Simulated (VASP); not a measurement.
# Stress, transverse strain and strain energy of zinc-blende BP under uniaxial [111] strain up to 2 %, with LDA

A BP crystal stretched by 2 % along [111] narrows across that axis by only 0.173 %, so most of the stretch goes into added volume. It also resists compression more than tension: −2 % strain takes 8.88 GPa, +2 % takes 8.15 GPa. For a strained layer or a bending part, we need to know which moduli describe this and at what strain constant moduli stop being good enough. We calculate the stress along the axis, the strain across it and the energy per atom for nine imposed strains, with the sides free of stress. Strains and energies are measured from the crystal relaxed with LDA; tension is positive.

## How the numbers were made

The start is a typed prototype cell. The crystal was relaxed with LDA. Strain is imposed along [111]; the strain across the axis is adjusted until the stress across it vanishes, and the atoms are relaxed with LDA. VASP 6.6.1, plane waves with PAW, cutoff 480 eV, no spin polarisation, no spin-orbit coupling, k mesh 11×11×11, static lattice.

Notes on method and selection:

- Runs that did not converge, have known faults or may not be shown are not listed, and runs on Ansatz's PAW sets soft_1 and soft_2 are kept to separate tables.

Columns:

- strain (%): strain along the axis (tension positive).
- gap (eV): band gap on the k mesh at LDA.
- transverse strain (%): strain across the axis.
- stress (GPa): stress along the axis, tension positive.
- strain energy (meV/atom): energy per atom above the relaxed crystal.

Input lines of one member:

```
PREC = Accurate
ENCUT = 480
EDIFF = 1E-07
NELM = 120
ISMEAR = 0
SIGMA = 0.02
LREAL = .FALSE.
ALGO = Normal
GGA = CA
NBANDS = 10
LASPH = .TRUE.
LORBIT = 11
KPAR = 3
IBRION = 1
NSW = 25
```

Command (options for logging and memory left out): `mpirun -np 3 vasp_std`

## Numbers

| member | strain (%) | gap (eV) | transverse strain (%) | stress (GPa) | strain energy (meV/atom) |
| --- | --- | --- | --- | --- | --- |
| −2 % | −2.0 | 0.963 | 0.205 | −8.88 | 6.27 |
| −1.5 % | −1.5 | 1.025 | 0.151 | −6.60 | 3.51 |
| −1 % | −1.0 | 1.082 | 0.100 | −4.36 | 1.56 |
| −0.5 % | −0.5 | 1.134 | 0.050 | −2.17 | 0.39 |
| 0 % | 0.0 | 1.176 | 0.000 | 0.00 | 0.00 |
| +0.5 % | 0.5 | 1.163 | −0.045 | 2.11 | 0.35 |
| +1 % | 1.0 | 1.145 | −0.089 | 4.17 | 1.44 |
| +1.5 % | 1.5 | 1.123 | −0.132 | 6.19 | 3.25 |
| +2 % | 2.0 | 1.098 | −0.173 | 8.15 | 5.76 |

transverse strain (%) against strain (%):

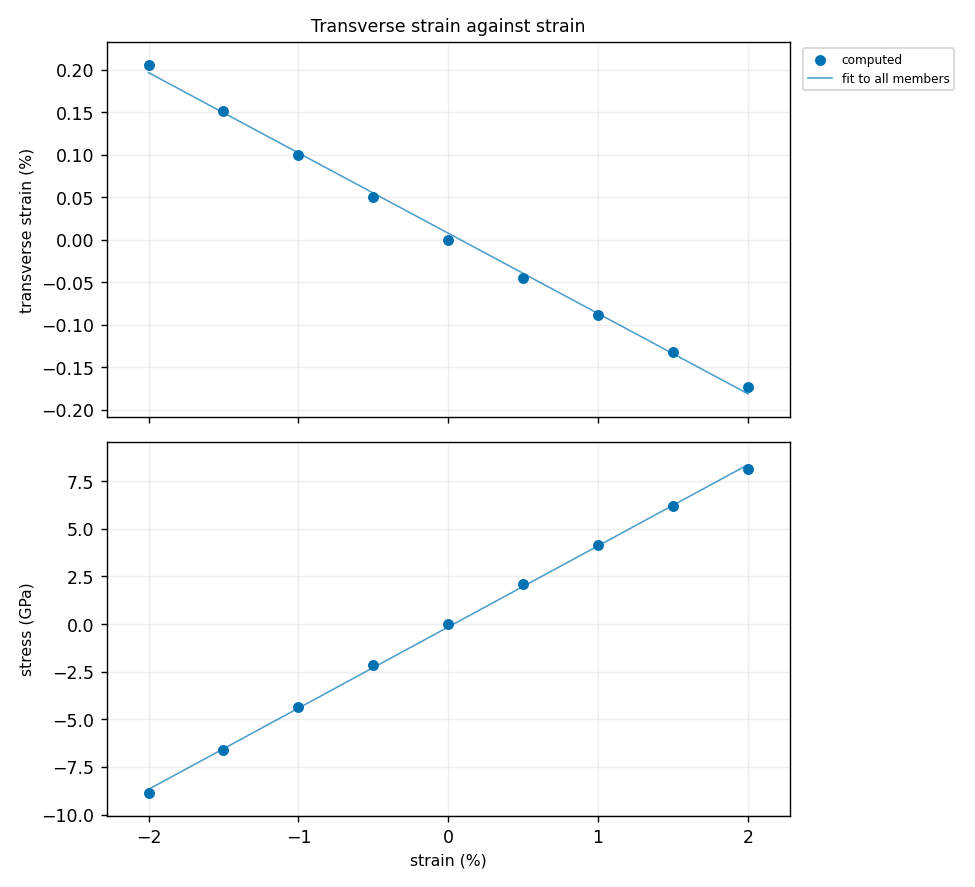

Least-squares fits to the whole series, with x = strain (%); R² and errors in the fitted variable (y, or ln y where the fit is in ln y):

| y | members | fit | R² | rms residual | leave-one-out rms | the same for the mean of the others |
| --- | --- | --- | --- | --- | --- | --- |
| transverse strain (%) | 9 | y = 0.007444 − 0.09447 x | 1.00 | 0.0054 | 0.0077 | 0.14 |
| stress (GPa) | 9 | y = −0.1544 + 4.261 x | 1.00 | 0.13 | 0.19 | 6.2 |

## Interpretation

From −2 % to +2 % the stress rises at every step and the transverse strain falls at every step, both nearly in proportion to the imposed strain. The energy grows nearly as its square.

The simplest model assumes an energy quadratic in strain, stress-free sides and atoms that settle within each strained cell. The last point matters because the boron and phosphorus sublattices shift against each other along [111]; the shear modulus below includes that relaxation.

Let $\epsilon$ be the strain along the axis and $t$ the strain across it. In a cubic crystal, [111] strain combines a volume change, resisted by the bulk modulus $K$, with a shear resisted by $C_{44}$ alone. The energy per volume is

$$u = \tfrac{1}{2}K(\epsilon+2t)^2 + \tfrac{2}{3}C_{44}(\epsilon-t)^2 .$$

Stress-free sides require $\partial u/\partial t = 0$, which gives

$$t = -\nu\epsilon, \qquad \nu = \frac{3K-2C_{44}}{6K+2C_{44}} .$$

The stress along the axis is $\sigma = \partial u/\partial\epsilon$. With the condition on $t$ inserted, it can be written in two ways:

$$\sigma = Y\epsilon, \qquad Y = 2C_{44}(1+\nu) = 3K(1-2\nu) .$$

The work done per atom, with $v_0$ the volume per atom, is

$$U = \tfrac{1}{2}v_0Y\epsilon^2 .$$

Three parameters, $K$, $C_{44}$ and $v_0$, thus fix all three curves. The Poisson ratio $\nu$ is small when $2C_{44}$ comes close to $3K$. This is expected of a crystal held by short, directional covalent bonds, which resist changes of angle as well as of length.

## Testing the model

We fix the model on −1 % and +1 %, averaging the two so that terms of opposite sign cancel.

- $Y$: (4.17 + 4.36) / 2 = 4.265 GPa per % of strain, or 4.265 × 100 = 426.5 GPa.
- $\nu$: (0.089 + 0.100) / 2 = 0.0945.
- $C_{44}$: 426.5 / (2 × (1 + 0.0945)) = 195 GPa.
- $K$: 426.5 / (3 × (1 − 2 × 0.0945)) = 175 GPa.
- Energy: (1.44 + 1.56) / 2 = 1.50 meV/atom at 1 %.

With 1 GPa Å$^3$ = 6.242 meV, the energy gives $v_0$ = 2 × 1.50 / (426.5 × 0.01² × 6.242) = 11.3 Å$^3$ per atom. The ±2 % pair has a mean energy of (5.76 + 6.27) / 2 = 6.015 meV/atom and a mean size of stress of (8.15 + 8.88) / 2 = 8.515 GPa. It gives the same volume, 2 × 6.015 / (8.515 × 0.02 × 6.242) = 11.3, so stresses and energies agree once the two signs of strain are averaged.

Four other members test the model.

**+2 %**
- Stress: 4.265 × 2.0 = 8.53 GPa; table 8.15.
- Transverse strain: −0.0945 × 2.0 = −0.189 %; table −0.173.
- Energy: 1.50 × 2.0² = 6.00 meV/atom; table 5.76.

**−2 %**
- Stress: 4.265 × (−2.0) = −8.53 GPa; table −8.88.
- Transverse strain: −0.0945 × (−2.0) = 0.189 %; table 0.205.
- Energy: 1.50 × 2.0² = 6.00 meV/atom; table 6.27.

**+1.5 %**
- Stress: 4.265 × 1.5 = 6.40 GPa; table 6.19.
- Transverse strain: −0.0945 × 1.5 = −0.142 %; table −0.132.
- Energy: 1.50 × 1.5² = 3.38 meV/atom; table 3.25.

**−0.5 %**
- Stress: 4.265 × (−0.5) = −2.13 GPa; table −2.17.
- Transverse strain: −0.0945 × (−0.5) = 0.047 %; table 0.050.
- Energy: 1.50 × 0.5² = 0.38 meV/atom; table 0.39.

## Outliers

Largest departures from the fit to the whole series:

| member | transverse strain (%) | fit | computed − fit | in rms residuals |
| --- | --- | --- | --- | --- |
| −2 % | 0.205 | 0.196 | +0.009 | 1.6 |
| +2 % | −0.173 | −0.181 | +0.008 | 1.6 |
| 0 % | 0.000 | 0.007 | −0.007 | 1.4 |
| +0.5 % | −0.045 | −0.040 | −0.005 | 1.0 |

The linear model overestimates the stress in tension and underestimates its size in compression. The assumption that fails is constant stiffness. The mean of the stresses at ±2 % is (8.15 − 8.88) / 2 = −0.365 GPa, against (4.17 − 4.36) / 2 = −0.095 GPa at ±1 %. The ratio of 3.8 is close to the 4 expected of a term in $\epsilon^2$. Bonds that stiffen when shortened and soften when stretched would give this sign. The same curvature produces the intercept of −0.1544 GPa in the straight-line fit, which is therefore no residual stress.

The transverse strain is curved too, which is the pattern in the table above. Its size divided by the imposed strain is 0.205 / 2.0 = 0.1025 at −2 % and 0.173 / 2.0 = 0.0865 at +2 %, so the Poisson ratio is not constant either.

The energy shows a second, smaller departure. Integrating the curved stress makes −1 % costlier than +1 % by 2/3 × 11.3 × 0.095 × 0.01 × 6.242 = 0.04 meV/atom; the table gives 1.56 − 1.44 = 0.12. The energy minimum therefore lies slightly on the tension side of the cell with zero stress. A likely cause is the finite plane-wave basis: at fixed cutoff a larger cell holds more plane waves, which lowers its energy a little further than the stress implies.

## Conclusions

Constant moduli reproduce the stress within 2 % at ±0.5 % strain, within 3 % at ±1 % and within 5 % at ±2 %. The transverse strain is less well served, with an error of 8 to 9 % at ±2 %. Stress divided by strain runs from 8.88 / 0.02 = 444 GPa at −2 % to 8.15 / 0.02 = 407.5 GPa at +2 %.

Crystal direction can matter more than this spread. In zinc-blende crystals Young's modulus along [100] is commonly lower than along [111], roughly by some tens of per cent. This series yields $K$ and $C_{44}$ but not $C_{11}$ and $C_{12}$ separately, so it does not supply the [100] value. Atomic vibrations, absent from a static lattice, usually soften the moduli by roughly a few per cent, which is comparable with the error of constant moduli at ±2 %.

[Logs are printed without paths, hosts, clocks, repeated set-up lines and the standing remarks that a program may print on its own settings, such as how far it seeks lower states.]
